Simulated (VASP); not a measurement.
# Biaxial (0001) strain in hexagonal Re with PBEsol: normal strain, stress, strain energy and the limit of linear elasticity

A rhenium film grown with its (0001) plane on a substrate is forced to take up an in-plane strain from lattice mismatch or from unequal thermal contraction, while its free surface leaves the normal direction unloaded. The stress decides whether the film stays flat and attached, and the strain energy is what relaxation by dislocations can release. I use a perfect crystal under the same loading to find out how normal strain, stress and energy follow the imposed strain, which elastic moduli this fixes, and where proportionality fails. Strains and energies are measured from the crystal relaxed with PBEsol; tension is positive, and energies are per atom.

## How the numbers were made

The start is an entry of the ASE's table of reference states database. The crystal was relaxed with PBEsol. Equal strain is imposed in the (0001) plane; the strain along the normal is adjusted until the normal stress vanishes, and the atoms are relaxed with PBEsol. VASP 6.6.1, plane waves with PAW, cutoff 450 eV, no spin polarisation, no spin-orbit coupling, k mesh 24×24×13, static lattice. The same in all rows: band gap on the k mesh at PBEsol: 0.000 eV.

Notes on method and selection:

- Runs that did not converge, have known faults or may not be shown are not listed, and runs on Ansatz's PAW sets soft_1 and soft_2 are kept to separate tables.

Columns:

- strain (%): strain in the plane (tension positive).
- normal strain (%): strain along the normal.
- stress (GPa): in-plane stress, tension positive.
- strain energy (meV/atom): energy per atom above the relaxed crystal.

Input lines of one member:

```
PREC = Accurate
ENCUT = 450
EDIFF = 1E-07
NELM = 120
ISMEAR = 1
SIGMA = 0.15
LREAL = .FALSE.
ALGO = Normal
GGA = PS
NBANDS = 13
LASPH = .TRUE.
LORBIT = 11
KPAR = 2
IBRION = 1
NSW = 25
```

Command (options for logging and memory left out): `mpirun -np 2 vasp_std`

## Data

| member | strain (%) | normal strain (%) | stress (GPa) | strain energy (meV/atom) |
| --- | --- | --- | --- | --- |
| −2 % | −2.0 | 1.317 | −18.13 | 31.62 |
| −1.5 % | −1.5 | 0.984 | −13.22 | 17.42 |
| −1 % | −1.0 | 0.663 | −8.51 | 7.58 |
| −0.5 % | −0.5 | 0.335 | −4.10 | 1.87 |
| 0 % | 0.0 | 0.003 | 0.01 | 0.00 |
| +0.5 % | 0.5 | −0.338 | 3.84 | 1.77 |
| +1 % | 1.0 | −0.702 | 7.31 | 6.90 |
| +1.5 % | 1.5 | −1.074 | 10.52 | 15.04 |
| +2 % | 2.0 | −1.440 | 13.54 | 26.05 |

normal strain (%) against strain (%):

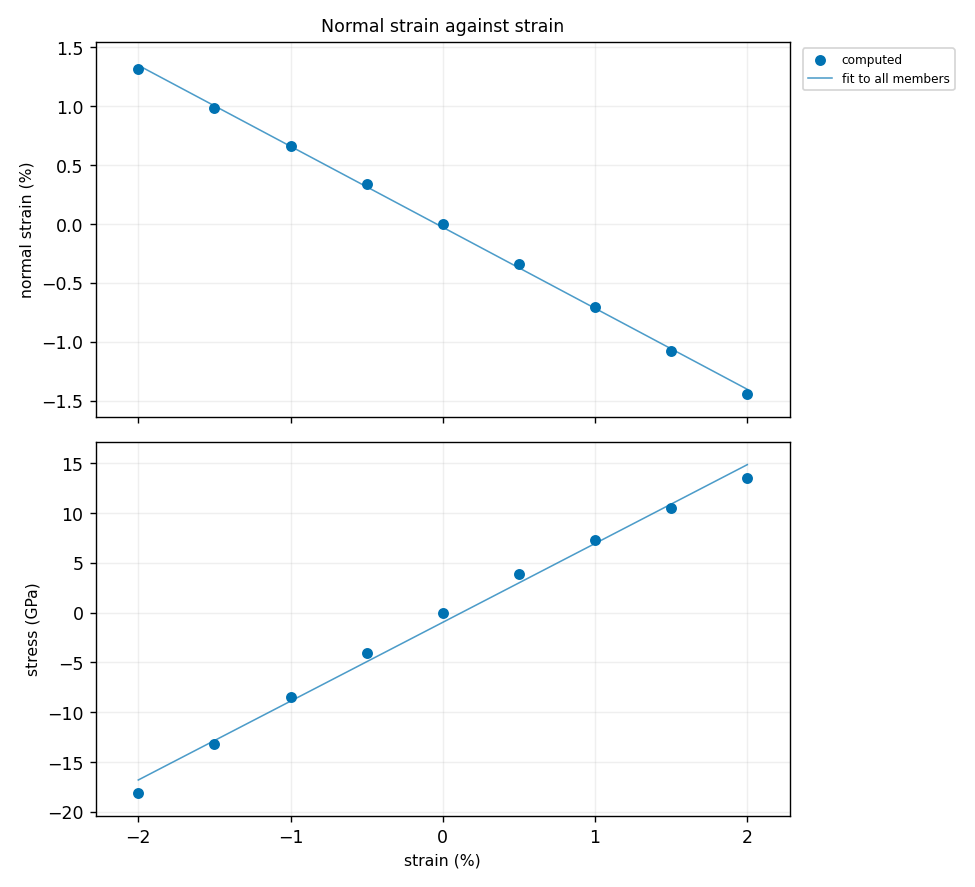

Least-squares fits to the whole series, with x = strain (%); R² and errors in the fitted variable (y, or ln y where the fit is in ln y):

| y | members | fit | R² | rms residual | leave-one-out rms | the same for the mean of the others |
| --- | --- | --- | --- | --- | --- | --- |
| normal strain (%) | 9 | y = −0.02800 − 0.6868 x | 1.00 | 0.025 | 0.034 | 1.00 |
| stress (GPa) | 9 | y = −0.9711 + 7.916 x | 0.99 | 0.85 | 1.2 | 12 |

## The trend and its physics

Stretching the plane thins the crystal along its normal, and compressing it does the reverse. From −2 % to +2 % in-plane strain, the normal strain falls from 1.317 % to −1.440 % and the stress rises from −18.13 to 13.54 GPa. The energy increases on both sides of zero, more steeply under compression.

The simplest model is linear elasticity, which I derive from three assumptions: the energy is quadratic in the strains, the normal stress is zero, and the change of volume during loading can be neglected in the work. Symmetry fixes the atomic positions within the cell, so no internal displacement enters.

For equal in-plane strains ε and a normal strain ε_z, the energy per volume of a hexagonal crystal is

w = (C₁₁ + C₁₂) ε² + 2 C₁₃ ε ε_z + ½ C₃₃ ε_z².

The normal stress is the derivative with respect to ε_z. Setting 2 C₁₃ ε + C₃₃ ε_z = 0 gives

ε_z = −r ε, with r = 2 C₁₃/C₃₃.

The in-plane stress is half the derivative with respect to ε, because two directions are strained together: σ = (C₁₁ + C₁₂) ε + C₁₃ ε_z. Inserting ε_z gives

σ = M ε, with M = C₁₁ + C₁₂ − 2 C₁₃²/C₃₃.

Putting the same ε_z into w leaves w = M ε², so the energy per atom is

E = V M ε²,

where V is the volume per atom. The three parameters are r, M and V.

The sign of r has a simple origin. Stretching the plane lowers the electron density and pulls neighbouring layers closer, which recovers part of the lost cohesion. Constant volume would need r = 2. The computed ratio is near 0.7, so the crystal gains volume under tension: resistance to shape change keeps the layers from closing up further.

## The model against the table

I fix the model on the members −0.5 % and +0.5 %. Taking half the difference of their stresses and normal strains, and the mean of their energies, cancels the leading asymmetry between tension and compression.

The normal strain gives r = (0.335 + 0.338) / (0.5 + 0.5) = 0.673, so C₁₃/C₃₃ is 0.673 / 2 = 0.34. The stress gives M = (3.84 + 4.10) / (0.5 + 0.5) = 7.94 GPa per % of strain, or 7.94 × 100 = 794 GPa for strain written as a fraction. The energy gives V M = (1.87 + 1.77) / 2 / 0.5² = 7.28 meV/atom per %², or 7.28 × 10000 / 1000 = 72.8 eV/atom for strain written as a fraction. With 1 eV/Å³ = 160.2 GPa, V = 72.8 × 160.2 / 794 = 14.7 Å³ per atom, a sensible size for a close-packed 5d metal. Stress and energy therefore tell the same story.

For +1 %, the normal strain is −0.673 × 1 = −0.673 % (table: −0.702), the stress 7.94 × 1 = 7.94 GPa (7.31) and the energy 7.28 × 1² = 7.28 meV/atom (6.90).

For −1 %, the normal strain and the stress change sign and the energy stays the same: 0.673 % (0.663), −7.94 GPa (−8.51) and 7.28 meV/atom (7.58).

For +2 %, I get −0.673 × 2 = −1.346 % (−1.440), 7.94 × 2 = 15.88 GPa (13.54) and 7.28 × 2² = 29.12 meV/atom (26.05).

For −2 %, the model gives 1.346 % (1.317), −15.88 GPa (−18.13) and 29.12 meV/atom (31.62).

## Residuals

Largest departures from the fit to the whole series:

| member | normal strain (%) | fit | computed − fit | in rms residuals |
| --- | --- | --- | --- | --- |
| +2 % | −1.440 | −1.402 | −0.038 | 1.6 |
| +0.5 % | −0.338 | −0.371 | +0.033 | 1.3 |
| 0 % | 0.003 | −0.028 | +0.031 | 1.3 |
| −2 % | 1.317 | 1.346 | −0.029 | 1.2 |

The stress departs from the model in the same direction on both sides. It lies below the model by 7.94 − 7.31 = 0.63 GPa at +1 % and 8.51 − 7.94 = 0.57 GPa at −1 %, and by 15.88 − 13.54 = 2.34 GPa at +2 % and 18.13 − 15.88 = 2.25 GPa at −2 %. Doubling the strain multiplies the departure by about four, which marks a term in ε². The assumption that fails is the quadratic energy: repulsion between atoms steepens as they are pushed together, so the crystal stiffens under compression and softens under tension.

The energy confirms this. A stress term in ε² integrates to an energy term in ε³ with two thirds of the relative weight. At 2 % the mean departure of the stress, 2.30 GPa, gives 2.30 / 15.88 × 2 / 3 = 0.097, and the table gives (31.62 − 26.05) / 2 / 29.12 = 0.096.

The same curvature produces the intercept of −0.9711 GPa in the straight-line fit. It is no residual stress, since the unstrained row has 0.01 GPa.

The normal strain is less regular. Its slope between neighbouring rows is −0.682 from 0 to +0.5 % and −0.728 from +0.5 to +1 %. Higher-order elasticity may cause this, as may the finite k mesh.

## What to take away

Linear elasticity reproduces the stress to about 3 % at ±0.5 % strain and to 7–9 % at ±1 %. At +2 % it overestimates the tension by 17 %, and at −2 % it underestimates the compression by 12 %. The series fixes M and the ratio C₁₃/C₃₃, but not the four elastic constants one by one.

M changes by less than 1 % when it is taken from the ±1 % or ±2 % pair instead. Two omitted effects are larger. Thermal motion should lower M by a few per cent at room temperature. Plastic flow matters far more in a thick film: dislocations would relieve most of the 13.54 GPa found at +2 %, a reduction of roughly 10 GPa.

[Logs are printed without paths, hosts, clocks, repeated set-up lines and the standing remarks that a program may print on its own settings, such as how far it seeks lower states.]
